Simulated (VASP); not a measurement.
# Pressure and energy of zinc-blende GaSb from −6.32 to +5.64 % volume change with optB86b-vdW

GaSb is a zinc-blende crystal in which every Ga atom is bound to four Sb atoms and every Sb atom to four Ga atoms by slightly polar covalent bonds. The seven members are this one crystal at seven volumes, so only the bond length differs between them.

Our brief is a GaSb test piece squeezed evenly in a pressure cell. It should work at the highest pressure between 1 and 3 GPa, shorten by no more than 20 µm per mm of edge, and store no more than 60 J/cm³, which limits what is released if a seal fails. We calculate pressure and energy for a static lattice. Volume changes are measured from the fitted minimum at 29.35 Å³ per atom, and energies from the lowest row, 29.25 Å³.

## Method

A cell from the Materials Project database, relaxed at this level and then scaled evenly, fractional positions kept. VASP 6.6.1, plane waves with PAW, optB86b-vdW, cutoff 400 eV, k mesh 6×6×6, no spin polarisation, no spin-orbit coupling, static lattice. A Birch-Murnaghan fit to the energies has its minimum at 29.35 Å³ per atom.

Notes on method and selection:

- The pressure is that of a finite plane-wave basis, so it need not vanish exactly at the minimum of the energy.
- Only series whose fit has its minimum inside the range and an error under 0.5 meV per atom are shown.
- Runs that did not converge, have known faults or may not be shown are not listed, and runs on Ansatz's PAW sets soft_1 and soft_2 are kept to separate tables.

Columns:

- volume change (%): volume relative to the fitted equilibrium volume.
- pressure (GPa): pressure from the stress tensor (positive: compressed).
- energy (meV/atom): energy per atom above the lowest point of the series.

## Data

| member | volume change (%) | pressure (GPa) | energy (meV/atom) |
| --- | --- | --- | --- |
| 27.50 Å³ | −6.32 | 3.30 | 18.76 |
| 28.08 Å³ | −4.32 | 2.04 | 8.59 |
| 28.67 Å³ | −2.33 | 1.03 | 2.44 |
| 29.25 Å³ | −0.34 | 0.00 | 0.00 |
| 29.84 Å³ | 1.66 | −0.93 | 1.19 |
| 30.42 Å³ | 3.65 | −1.75 | 5.52 |
| 31.01 Å³ | 5.64 | −2.48 | 12.70 |

pressure (GPa) against volume change (%):

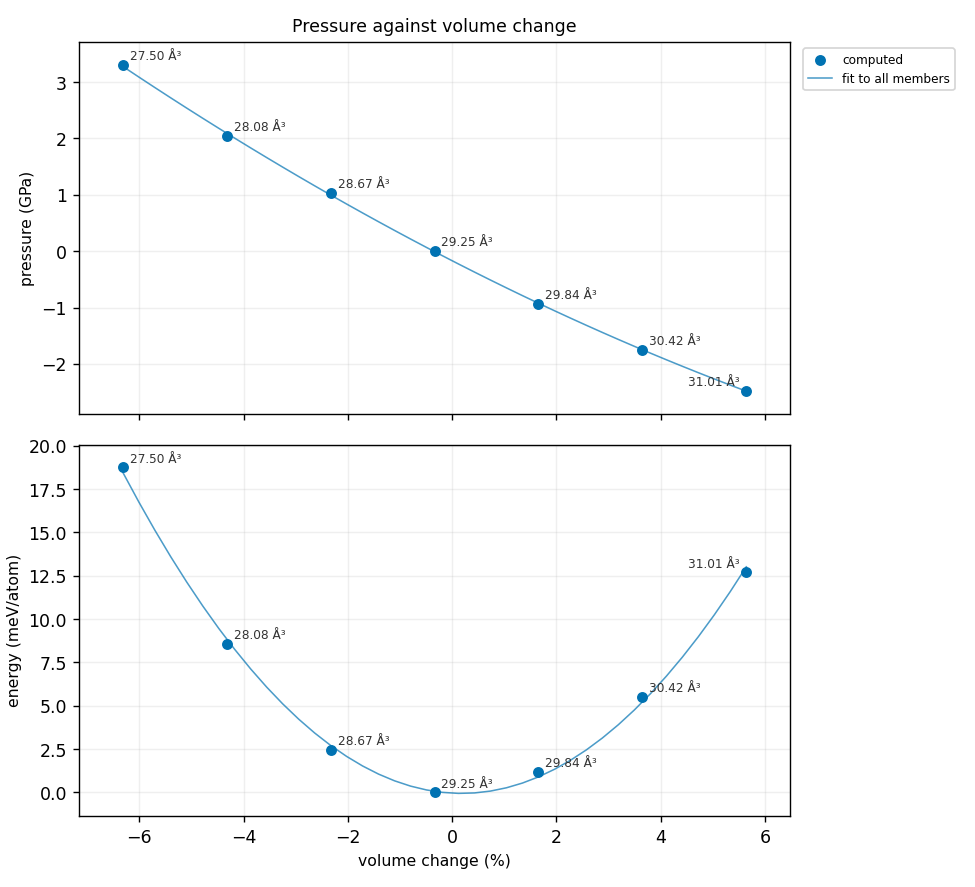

Least-squares fits to the whole series, with x = volume change (%); R² and errors in the fitted variable (y, or ln y where the fit is in ln y):

| y | members | fit | R² | rms residual | leave-one-out rms | the same for the mean of the others |
| --- | --- | --- | --- | --- | --- | --- |
| pressure (GPa) | 7 | y = −0.1685 − 0.4740 x + 0.01134 x² | 1.00 | 0.024 | 0.045 | 2.2 |
| energy (meV/atom) | 7 | y = −0.04736 − 0.1614 x + 0.4387 x² | 1.00 | 0.26 | 0.70 | 7.4 |

## Mechanism

The pressure falls at every step as the cell grows, from 3.30 GPa at 27.50 Å³ to −2.48 GPa at 31.01 Å³. The negative values mean that the crystal is under tension and pulls inwards.

The slope is not constant. Between the two smallest cells it is (3.30 − 2.04) / (6.32 − 4.32) = 0.63 GPa per % of volume, and between the two largest it is (2.48 − 1.75) / (5.64 − 3.65) = 0.37 GPa per %. Theory gives the reason: the repulsion between overlapping electron shells rises steeply as the bonds shorten, while the bonding attraction changes more slowly. The crystal therefore stiffens under compression and softens under tension.

The energy shows the same asymmetry. Divided by the square of the volume change, it is 18.76 / 6.32² = 0.47 meV per atom at the compressed end and 12.70 / 5.64² = 0.40 at the expanded end.

The two columns are tied together by the bulk modulus B. The linear term of the pressure fit gives B = 100 × 0.4740 = 47.4 GPa. For small changes the energy per atom is ½BV(x/100)², with V the equilibrium volume per atom and 1 eV/Å³ = 160.2 GPa. This predicts a quadratic coefficient of 0.5 × 47.4 × 29.35 / 160.2 × 0.1 = 0.434 meV, close to the fitted 0.4387. The factor 0.1 is 1000 / 100², from eV to meV and from fractions to per cent.

The zeros do not quite coincide. Across the 29.25 Å³ row the energy falls by 2.44 − 1.19 = 1.25 meV over 29.84 − 28.67 = 1.17 Å³, which corresponds to 1.25 / 1.17 × 0.1602 = 0.17 GPa, whereas the stress tensor gives 0.00. The sign is that expected of a finite plane-wave basis, which makes the stress pressure too low.

## Outliers

Largest departures from the fit to the whole series:

| member | pressure (GPa) | fit | computed − fit | in rms residuals |
| --- | --- | --- | --- | --- |
| 28.08 Å³ | 2.04 | 2.09 | −0.05 | 2.1 |
| 28.67 Å³ | 1.03 | 1.00 | +0.03 | 1.3 |
| 27.50 Å³ | 3.30 | 3.28 | +0.02 | 0.8 |
| 29.25 Å³ | 0.00 | −0.01 | +0.01 | 0.2 |

From the smallest cell upwards, the pressure drops by 1.26, 1.01, 1.03, 0.93, 0.82 and 0.73 GPa. The second drop is out of sequence: midway between its neighbours would be (1.26 + 1.03) / 2 = 1.145, so the two smallest cells lie roughly 0.1 GPa below the continuation of the other five.

A likely cause is the band gap. The most compressed cells have a small gap at the zone centre and the larger ones have none, a known failing of such functionals, since real GaSb is a semiconductor. Without a gap, an antibonding s state that rises under compression can be filled, which adds pressure. If one mesh point out of 6 × 6 × 6 = 216 carries two such electrons, and the gap shifts by roughly 8 eV per unit relative volume change, the addition is 2 × 8 / 216 / 58.7 × 160.2 ≈ 0.2 GPa, with 2 × 29.35 = 58.7 Å³ the volume of the two-atom cell. Sign and size fit. A denser mesh should shrink the step. All seven rows remain usable to about 0.2 GPa.

## Choosing a member

We add the 0.17 GPa basis correction to each pressure. The shortening per mm of edge is 1000 × [1 − (1 + x/100)^(1/3)] µm, with x the volume change in %. The stored energy density is E / 29.35 × 160.2 J/cm³, with E in meV per atom, because 1 meV/Å³ is 160.2 J/cm³.

The three largest cells are under tension, which a pressure cell cannot supply, and 29.25 Å³ reaches only 0.17 GPa. Three rows are left to screen:

- **27.50 Å³:** 3.30 + 0.17 = 3.47 GPa, about 22 µm per mm, and 18.76 / 29.35 × 160.2 = 102 J/cm³. It fails all three limits.
- **28.08 Å³:** 2.04 + 0.17 = 2.21 GPa, about 15 µm per mm, and 8.59 / 29.35 × 160.2 = 46.9 J/cm³. It passes.
- **28.67 Å³:** 1.03 + 0.17 = 1.20 GPa, 7.8 µm per mm, and 2.44 / 29.35 × 160.2 = 13.3 J/cm³. It passes.

The pick is 28.08 Å³, which has the higher pressure of the two that pass. The runner-up is 28.67 Å³, which stores less than a third of the energy but works near the lower pressure limit.

Functionals of this kind tend to make heavy III–V crystals a few per cent too large in volume and perhaps 10 to 20 % too soft. The first error means that the piece should be specified by its relative compression of 4.32 %, not by its absolute volume. The second means that the real pressure and stored energy at a given compression are higher than calculated. If the calculation is 20 % too soft, the real stiffness is 1 / 0.8 = 1.25 times the calculated one, and the pick would reach 2.21 × 1.25 = 2.76 GPa and 46.9 × 1.25 = 58.6 J/cm³, still just inside the brief.

The energy limit would be the first to give way, at a stiffness 60 / 46.9 = 1.28 times the calculated one. A measured compression curve showing that much extra stiffness would hand the choice to 28.67 Å³.

## Rules of thumb and their limits

Between −6.32 and +5.64 % volume change, GaSb at this level behaves as a spring of about 47 GPa that stiffens when squeezed. Within that range the quadratic pressure fit predicts a left-out row to 0.045 GPa, against 2.2 GPa for the mean of the others.

The main omission is lattice vibration. At room temperature it adds roughly 80 meV per atom, more than the whole 18.76 meV energy spread, but most of this is common to all volumes and leaves the shape of the curve nearly intact. Its effect on pressure is positive, a few tenths of a GPa, well below the pressure spread, and it moves the equilibrium to a slightly larger volume.

[On method and selection: Where rows or columns differ in functional or spin-orbit coupling, non-spherical gradient terms in the PAW spheres (LASPH) may be on in some and off in others.]
